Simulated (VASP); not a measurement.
# Stress, normal strain and elastic moduli of rock-salt HfC under biaxial (001) strain, calculated with PBEsol

A hard carbide coating on a substrate with a different lattice or thermal expansion is strained in its plane. The stress that builds up, and the energy stored with it, help to decide whether the coating cracks or peels. For HfC we need to know how large both are at a given strain, and up to what strain constant elastic moduli describe them. We calculated a (001)-oriented crystal with PBEsol at nine in-plane strains from −2 % to +2 %, with the surface normal free of stress. Strains and energies are measured from the relaxed cubic crystal, and tension counts as positive.

## Calculations

The start is a typed prototype cell. The crystal was relaxed with PBEsol. Equal strain is imposed in the (001) plane; the strain along the normal is adjusted until the normal stress vanishes, and the atoms are relaxed with PBEsol. VASP 6.6.1, plane waves with PAW, cutoff 600 eV, no spin polarisation, no spin-orbit coupling, k mesh 19×19×19, static lattice. The same in all rows: band gap on the k mesh at PBEsol: 0.000 eV.

Notes on method and selection:

- Runs that did not converge, have known faults or may not be shown are not listed, and runs on Ansatz's PAW sets soft_1 and soft_2 are kept to separate tables.

Columns:

- strain (%): strain in the plane (tension positive).
- normal strain (%): strain along the normal.
- stress (GPa): in-plane stress, tension positive.
- strain energy (meV/atom): energy per atom above the relaxed crystal.

Input lines of one member:

```
PREC = Accurate
ENCUT = 600
EDIFF = 1E-07
NELM = 120
ISMEAR = 1
SIGMA = 0.15
LREAL = .FALSE.
ALGO = Normal
GGA = PS
NBANDS = 14
LASPH = .TRUE.
LORBIT = 11
KPAR = 2
IBRION = 1
NSW = 25
```

Command (options for logging and memory left out): `mpirun -np 2 vasp_std`

## Numbers

| member | strain (%) | normal strain (%) | stress (GPa) | strain energy (meV/atom) |
| --- | --- | --- | --- | --- |
| −2 % | −2.0 | 0.793 | −13.85 | 20.72 |
| −1.5 % | −1.5 | 0.588 | −10.10 | 11.54 |
| −1 % | −1.0 | 0.386 | −6.54 | 5.115 |
| −0.5 % | −0.5 | 0.190 | −3.17 | 1.307 |
| 0 % | 0.0 | −0.003 | 0.01 | 7.80×10⁻⁴ |
| +0.5 % | 0.5 | −0.190 | 3.02 | 1.075 |
| +1 % | 1.0 | −0.379 | 5.85 | 4.413 |
| +1.5 % | 1.5 | −0.565 | 8.51 | 9.881 |
| +2 % | 2.0 | −0.751 | 11.01 | 17.37 |

normal strain (%) against strain (%):

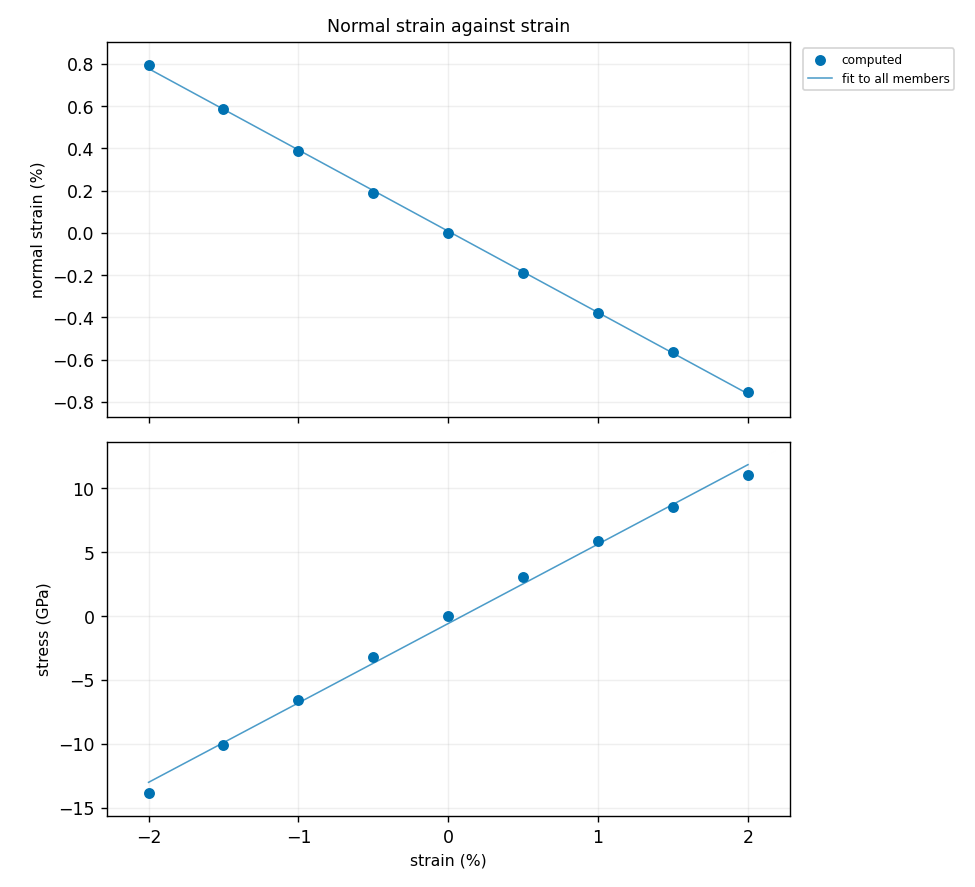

Least-squares fits to the whole series, with x = strain (%); R² and errors in the fitted variable (y, or ln y where the fit is in ln y):

| y | members | fit | R² | rms residual | leave-one-out rms | the same for the mean of the others |
| --- | --- | --- | --- | --- | --- | --- |
| normal strain (%) | 9 | y = 0.007667 − 0.3848 x | 1.00 | 0.0087 | 0.012 | 0.56 |
| stress (GPa) | 9 | y = −0.5844 + 6.208 x | 1.00 | 0.52 | 0.75 | 9.0 |

## The trend and its physics

As the in-plane strain goes from −2 % to +2 %, the normal strain falls from 0.793 % to −0.751 % and the stress rises from −13.85 to 11.01 GPa. The stress rises less with each step: by 3.75 GPa over the first half per cent and by 2.50 GPa over the last. At equal size of strain, compression always costs more energy than tension.

The simplest model starts from a cubic crystal with its axes along the cube edges, in-plane strain $e$ and normal strain $e_n$. Hf and C sit on sites fixed by symmetry, so no internal displacement enters. The condition of zero normal stress is

$$2C_{12}e + C_{11}e_n = 0,$$

which gives

$$e_n = -r\,e,\qquad r = 2C_{12}/C_{11}.$$

Inserting this in the in-plane stress $\sigma = (C_{11}+C_{12})e + C_{12}e_n$ gives $\sigma = Me$, with the biaxial modulus

$$M = C_{11}+C_{12}-2C_{12}^2/C_{11}.$$

This linear law makes tension and compression equally stiff. Real bonds stiffen when shortened and soften when stretched, so we add the next term, with $\beta$ expected to be negative:

$$\sigma = Me + \beta e^2.$$

The three parameters are $r$, $M$ and $\beta$.

The energy is the work done by the stress along the two in-plane directions. With $V_0$ the volume per atom of the relaxed crystal, and with the change in area of the loaded faces included,

$$dU = 2V_0(1+e)(1+e_n)\,\sigma\,de.$$

Integrated to third order, this is

$$U = V_0\left[Me^2 + \tfrac{2}{3}\big(\beta + (1-r)M\big)e^3\right].$$

The energy therefore needs no further elastic parameter, only the scale $V_0$.

## The model against the table

We fix the model on the members −1 % and +1 %, with $x$ the in-plane strain in per cent:

- $r$ = (0.386 + 0.379) / 2 = 0.3825
- $M$ = (5.85 + 6.54) / 2 = 6.195 GPa per %, or 6.195 × 100 = 619.5 GPa
- $\beta$ = (5.85 − 6.54) / 2 = −0.345 GPa per %²

The moduli follow from $C_{12}/C_{11}$ = 0.3825 / 2 = 0.191:

- $C_{11}$ = 619.5 / (1 + 0.191 − 2 × 0.191²) = 554 GPa
- $C_{12}$ = 0.191 × 554 = 106 GPa
- bulk modulus = (554 + 2 × 106) / 3 = 255 GPa

The shear modulus $C_{44}$ does not enter this deformation.

The stress of four other members is then, in GPa:

- +2 %: 6.195 × 2 − 0.345 × 4 = 11.01; table 11.01
- −2 %: −6.195 × 2 − 0.345 × 4 = −13.77; table −13.85
- −1.5 %: −6.195 × 1.5 − 0.345 × 1.5² = −10.07; table −10.10
- +0.5 %: 6.195 × 0.5 − 0.345 × 0.5² = 3.01; table 3.02

The normal strain at +2 % is −0.3825 × 2 = −0.765 %, against −0.751 % in the table. At −2 % it is 0.765 %, against 0.793 %.

For the energy, the mean of the two fixing members gives $V_0M$ = (5.115 + 4.413) / 2 = 4.764 meV/atom per %². With $1-r$ = 1 − 0.3825 = 0.6175, the cubic term relative to the quadratic one is (2/3) × (−0.345 + 0.6175 × 6.195 / 100) / 6.195 = −0.033 per %. In meV/atom:

- +2 %: 4.764 × (4 − 0.033 × 8) = 17.80; table 17.37
- −2 %: 4.764 × (4 + 0.033 × 8) = 20.31; table 20.72

## Members off the line

Largest departures from the fit to the whole series:

| member | normal strain (%) | fit | computed − fit | in rms residuals |
| --- | --- | --- | --- | --- |
| −2 % | 0.793 | 0.777 | +0.016 | 1.8 |
| +2 % | −0.751 | −0.762 | +0.011 | 1.3 |
| 0 % | −0.003 | 0.008 | −0.011 | 1.2 |
| −0.5 % | 0.190 | 0.200 | −0.010 | 1.2 |

Without $\beta$, the stress at +2 % would be 6.195 × 2 = 12.39 GPa, which is 12.39 − 11.01 = 1.38 GPa too high. At −2 % the compressive stress would be 13.85 − 12.39 = 1.46 GPa too small. The assumption that fails is that of constant moduli. The same curvature produces the intercept of −0.5844 GPa in the printed straight-line fit; the unstrained crystal itself carries only 0.01 GPa.

The normal strain lies above the model by 0.014 at +2 % and by 0.028 at −2 % (in per cent strain), so $r$ is not strictly constant either.

The energy departs in another way. It is 17.80 − 17.37 = 0.43 meV/atom below the model at +2 % and 20.72 − 20.31 = 0.41 meV/atom above it at −2 %, and about half as much at ±1 %. This is a term linear in strain, about −0.2 meV/atom per %, as if the energy favoured a slightly larger cell than the stress does. A hydrostatic pressure $p$ missing from the computed stress would change the energy by $V_0\,p\,(2-r)\,e$ in size. With $V_0$ = 4.764 / 6.195 = 0.769 meV/atom per GPa and per cent, $p$ = 0.2 / (0.769 × (2 − 0.3825)) = 0.16 GPa would account for the term. The finite plane-wave basis at fixed cutoff has this sign, since a larger cell holds more plane waves; a smearing contribution to the energy is also possible.

## Conclusions

Constant moduli reproduce the stress to within 3 % at ±0.5 % strain and 6 % at ±1 %. At ±2 % the error exceeds 10 %, and one quadratic term reduces it to below 1 %. For the energy, constant moduli give 4.764 × 4 = 19.06 meV/atom at ±2 %, within 10 % of both computed values. This relative error does not shrink at small strain, because the small linear term in the energy then weighs more: at ±0.5 % it is still about 10 %.

The remaining misfit of the stress is at most 0.08 GPa. Two effects left out of the static, perfect crystal can easily matter more: heating and carbon vacancies, which are common in real carbides, both lower the stiffness. If the stiffness fell by only 5 %, the stress at +2 % strain would already drop by 0.05 × 11.01 = 0.55 GPa.

[Logs are printed without paths, hosts, clocks, repeated set-up lines and the standing remarks that a program may print on its own settings, such as how far it seeks lower states.]
